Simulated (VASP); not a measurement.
# Relaxed cell volume of fcc Cu against the diffraction cell: LDA, PBE, PBEsol, r2SCAN and dispersion-corrected levels

We have to decide which functional should set the copper lattice in our models of interconnects and metal contacts, and whether a dispersion term chosen for a neighbouring layer may also act on the metal. A wrong copper volume becomes a false strain once the metal is matched to another crystal: an error of 3.95 % in volume is about 3.95 / 3 = 1.3 % in length. We compare the volume per atom of Fm-3m Cu, relaxed as a static lattice at each level, with the diffraction cell of 11.81 Å³ per atom. A negative error means that the calculated cell is too small. Cubic symmetry leaves the lattice parameter as the only quantity that relaxes.

## Method

The start is the cell of a diffraction database, 11.81 Å³ per atom, whose temperature is that of the entry, mostly ambient. VASP 6.6.1, plane waves with PAW, cutoff 520 eV; cell and atoms fully relaxed at zero pressure at each level, static lattice, no spin polarisation, no spin-orbit coupling. All ran on Intel(R) Xeon(R) 6975P-C (Granite Rapids), shared with other work, so times are rough. All levels use the PAW data sets made with PBE. Non-spherical gradient terms inside the PAW spheres (LASPH) are on in the rows so marked and off in the others; they change results slightly and raise the cost.

Notes on method and selection:

- The diffraction cell holds zero-point and thermal expansion, typically 0.5 to 2 % in volume at room temperature, which a static relaxation lacks.
- Crystals whose PBE volume lies more than 1.5 % under or 25 % over the diffraction cell, or whose cell differs by over 0.3 % from another measurement, were left out.
- Non-spherical gradient terms in the PAW spheres (LASPH) were on for r2SCAN, r2SCAN + rVV10 and vdW-DF-cx, and off for LDA, PBE, PBEsol, PBE + D3(BJ) and PBE + D4; this difference bears on volumes and cost.
- Runs that did not converge, have known faults or may not be shown are not listed, and runs on Ansatz's PAW sets soft_1 and soft_2 are kept to separate tables.

Columns:

- volume error (%): relaxed volume relative to the diffraction cell.
- volume (Å³/atom): relaxed volume per atom.
- cost per step (core-s): processor time per ionic step of the relaxation.

Input lines of one member:

```
PREC = Accurate
ENCUT = 520
EDIFF = 1E-06
NELM = 100
ISMEAR = -1
SIGMA = 0.05
LREAL = .FALSE.
ALGO = Normal
GGA = CA
NBANDS = 11
LORBIT = 11
KPAR = 2
IBRION = 2
NSW = 60
ISIF = 3
```

Command (options for logging and memory left out): `mpirun -np 2 vasp_std`

## Data

```
member          volume error (%)  volume (Å³/atom)  cost per step (core-s)  remark
PBE + D3(BJ)    −3.95             11.344            3.3
r2SCAN + rVV10  −3.87             11.353            25                      LASPH on
LDA             −7.16             10.965            3.2
r2SCAN          −2.82             11.477            16                      LASPH on
PBE             1.50              11.987            2.9
PBE + D4        ?                 ?                 4
vdW-DF-cx       −2.87             11.471            14                      LASPH on
PBEsol          −3.83             11.358            3.3
```

Cells marked ? are withheld until the estimate has been made.

volume error (%) by member, members shown:

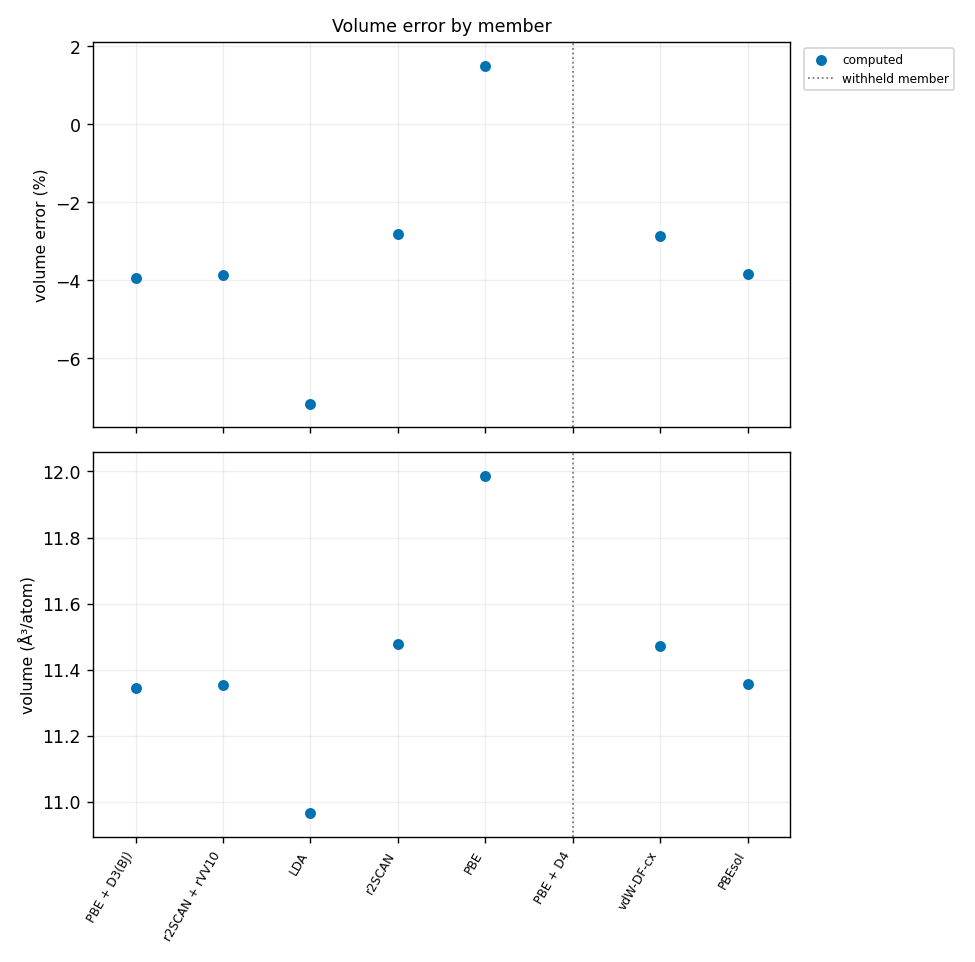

## What drives the series

PBE is the only level shown that gives a cell larger than the diffraction cell, by 1.50 %. The others are smaller, from −2.82 % with r2SCAN to −7.16 % with LDA. LDA and PBE differ by 1.50 + 7.16 = 8.66 percentage points. LDA binds too strongly at short distance; the gradient correction in PBE favours less uniform densities and so pushes the atoms apart. PBEsol has a weaker gradient dependence in its exchange and falls between them, at −3.83 %.

Dispersion terms contract the cell, by an amount that depends on the scheme and its parent functional. D3(BJ) moves PBE by −3.95 − 1.50 = −5.45 points, whereas rVV10 moves r2SCAN by −3.87 + 2.82 = −1.05 points. LASPH is the same within each pair, so it does not cause these shifts. An undamped pair attraction varies as −C₆/R⁶ and pulls inward. In a metal the mobile electrons screen this attraction, and coefficients derived from atoms and molecules can overstate it. r2SCAN already contains part of the medium-range attraction, which leaves less for rVV10 to add.

The diffraction cell includes zero-point and thermal expansion, typically 0.5 to 2 % in volume, so an ideal static calculation should give about −0.5 to −2 %. Against that range PBE is too large by 1.50 + 0.5 = 2.0 to 1.50 + 2 = 3.5 points, and r2SCAN too small by 0.8 to 2.3. The raw error therefore flatters PBE; r2SCAN and vdW-DF-cx, which are practically equal, come nearest over most of the range, and LDA is the worst. D3(BJ) turns the PBE cell from too large into too small, with no clear gain in accuracy. Because crystals were selected partly by their PBE volume, this ranking should not be carried over to metals in general.

## A prediction

Plain estimates from the members shown:

- PBE + D4, mean of the 7 members shown: −3.29 %, standard deviation 2.4

The mean of the seven members, −3.29 %, mixes different parent functionals, so we start from PBE + D3(BJ), which shares its parent and its pairwise form with PBE + D4. The charge dependence of D4 has little to act on here, since all atoms in elemental Cu are equivalent and neutral.

D4 normally adds a three-body term, which is repulsive in a close-packed crystal. We take its energy as roughly a tenth of the pair energy, a general size for dense solids. Without damping, the pair energy varies as V⁻² and the three-body energy as V⁻³, so the outward pressure is 0.1 × 3 / 2 = 0.15 of the inward one. Applied to the D3(BJ) contraction, this gives back 0.15 × 5.45 = 0.82 points, and the estimate is −3.95 + 0.82 = −3.13 %.

Changed pair coefficients and damping could matter as much as this shift. For the error bar we use the spread of the two dispersion contractions shown, 5.45 − 1.05 = 4.40 points. An even distribution of that width has a standard deviation of 4.40 / √12 = 1.27 points. Carrying the D3(BJ) shift over to r2SCAN would miss r2SCAN + rVV10 by the full 4.40 points. That comparison changes both the scheme and the parent functional, so it does not test the smaller step from D3(BJ) to D4 on a fixed parent.

**Committed estimate, PBE + D4: volume error = −3.1 ± 1.3 %.**

## Outcome

```
member    volume error (%)  volume (Å³/atom)  cost per step (core-s)
PBE + D4  −3.17             11.436            4
```

```
member    estimate   volume error (%)  computed  estimate − computed  miss in error bars
PBE + D4  committed  −3.10             −3.17     +0.07                0.1
PBE + D4  mean       −3.29             −3.17     −0.12
```

volume error (%) by member:

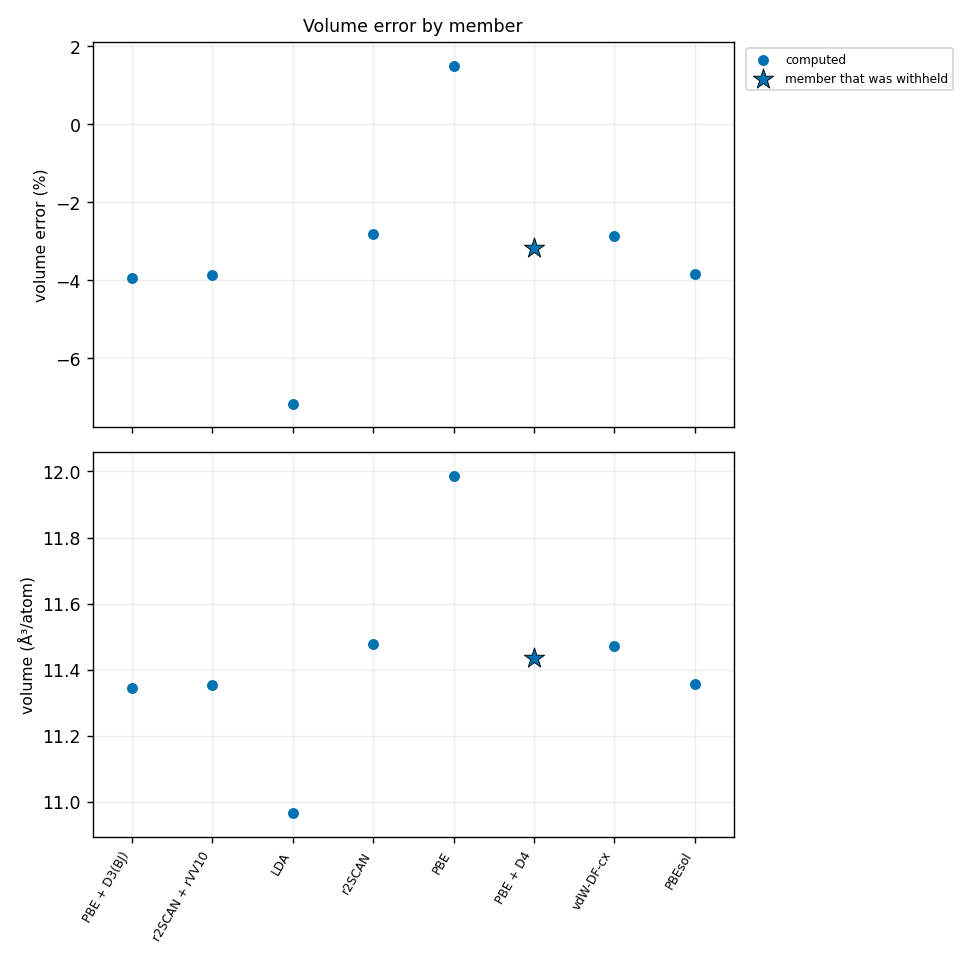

The computed error for PBE + D4 is −3.17 %, so our estimate of −3.1 ± 1.3 % is well inside its error bar. The mean of the other seven members, −3.29 %, was almost as close, and the difference between the two misses is too small to favour our route.

Starting from PBE + D3(BJ) held up. D4 contracts the PBE cell by 1.50 + 3.17 = 4.67 points, against 5.45 for D3(BJ), so the contraction is weaker by 0.78 points where we expected 0.82. The sign agrees with a repulsive three-body term. The size is weaker evidence, because we had assumed a three-body energy of a tenth of the pair energy, and D4 also changes the pair coefficients and the damping. Our error bar came from the spread between different schemes on different parent functionals and was wide for a step between two corrections to the same one.

## Members off the line

PBE and LDA stand apart at opposite ends. The other six members lie between −3.95 and −2.82 %, a width of only 3.95 − 2.82 = 1.13 points.

PBE, at +1.50 %, lies 1.50 + 2.82 = 4.32 points above the nearest of them. Its gradient correction weakens the bonding relative to LDA, and it has neither the reduced gradient dependence of PBEsol nor an added attraction to pull the cell back.

LDA, at −7.16 %, lies 7.16 − 3.95 = 3.21 points below the group, in the direction of its familiar overbinding. It was run with PAW data sets made for PBE, an inconsistency that may add a little to the error but is unlikely to account for a gap of this size.

The closeness of the six does not mean that they describe the bonding alike. PBEsol reaches −3.83 % through its exchange and correlation alone, while PBE + D3(BJ) reaches −3.95 % by adding a large attraction to a cell that was too big.

## Price of accuracy

LDA, PBE, PBEsol and the two corrected PBE levels cost 2.9 to 4 core-seconds per ionic step, which is no meaningful difference on shared machines. D3(BJ) and D4 are therefore practically free, and their effect on the volume is the only reason to accept or refuse them here.

r2SCAN costs 16 core-seconds per step, or 16 / 2.9 = 5.5 times PBE, and vdW-DF-cx costs 14. Part of this increase comes from LASPH, which was on for these levels. The extra time buys a cell 4.32 points smaller than that of PBE with r2SCAN, but no assured gain in accuracy for copper.

## Rules of thumb and their limits

For Cu, both corrections to PBE shrink the cell by about 5 %, while rVV10 shrinks that of r2SCAN by about 1 %. The two cases differ in both scheme and parent functional, so neither shift should be carried over to another pairing.

A small strain in length is about a third of the strain in volume. If D4 is switched on for the whole interface while the copper is kept at its PBE lattice, the metal is stretched relative to its PBE + D4 equilibrium by about (11.987 − 11.436) / 11.436 / 3 = 0.016, or 1.6 %.

Zero-point and thermal expansion, +0.5 to +2 % in volume, is smaller than the spread of the table but can change the ranking. r2SCAN is nearer to experiment than PBE only if the expansion exceeds about (2.82 − 1.50) / 2 = 0.66 %. LDA remains the worst throughout the range. For the copper lattice alone, r2SCAN or vdW-DF-cx is therefore the reasonable choice unless the expansion is at the low end of its range. A D3(BJ) or D4 term needed for a neighbouring layer may also act on the copper, provided the copper is relaxed with it: the cell then turns out too small instead of too large, and it is nearer to experiment than that of PBE if the expansion exceeds about (3.17 − 1.50) / 2 = 0.8 % with D4 or (3.95 − 1.50) / 2 = 1.2 % with D3(BJ). For an interface model, one level should set both lattices.

[Logs are printed without paths, hosts, clocks, repeated set-up lines and the standing remarks that a program may print on its own settings, such as how far it seeks lower states.]
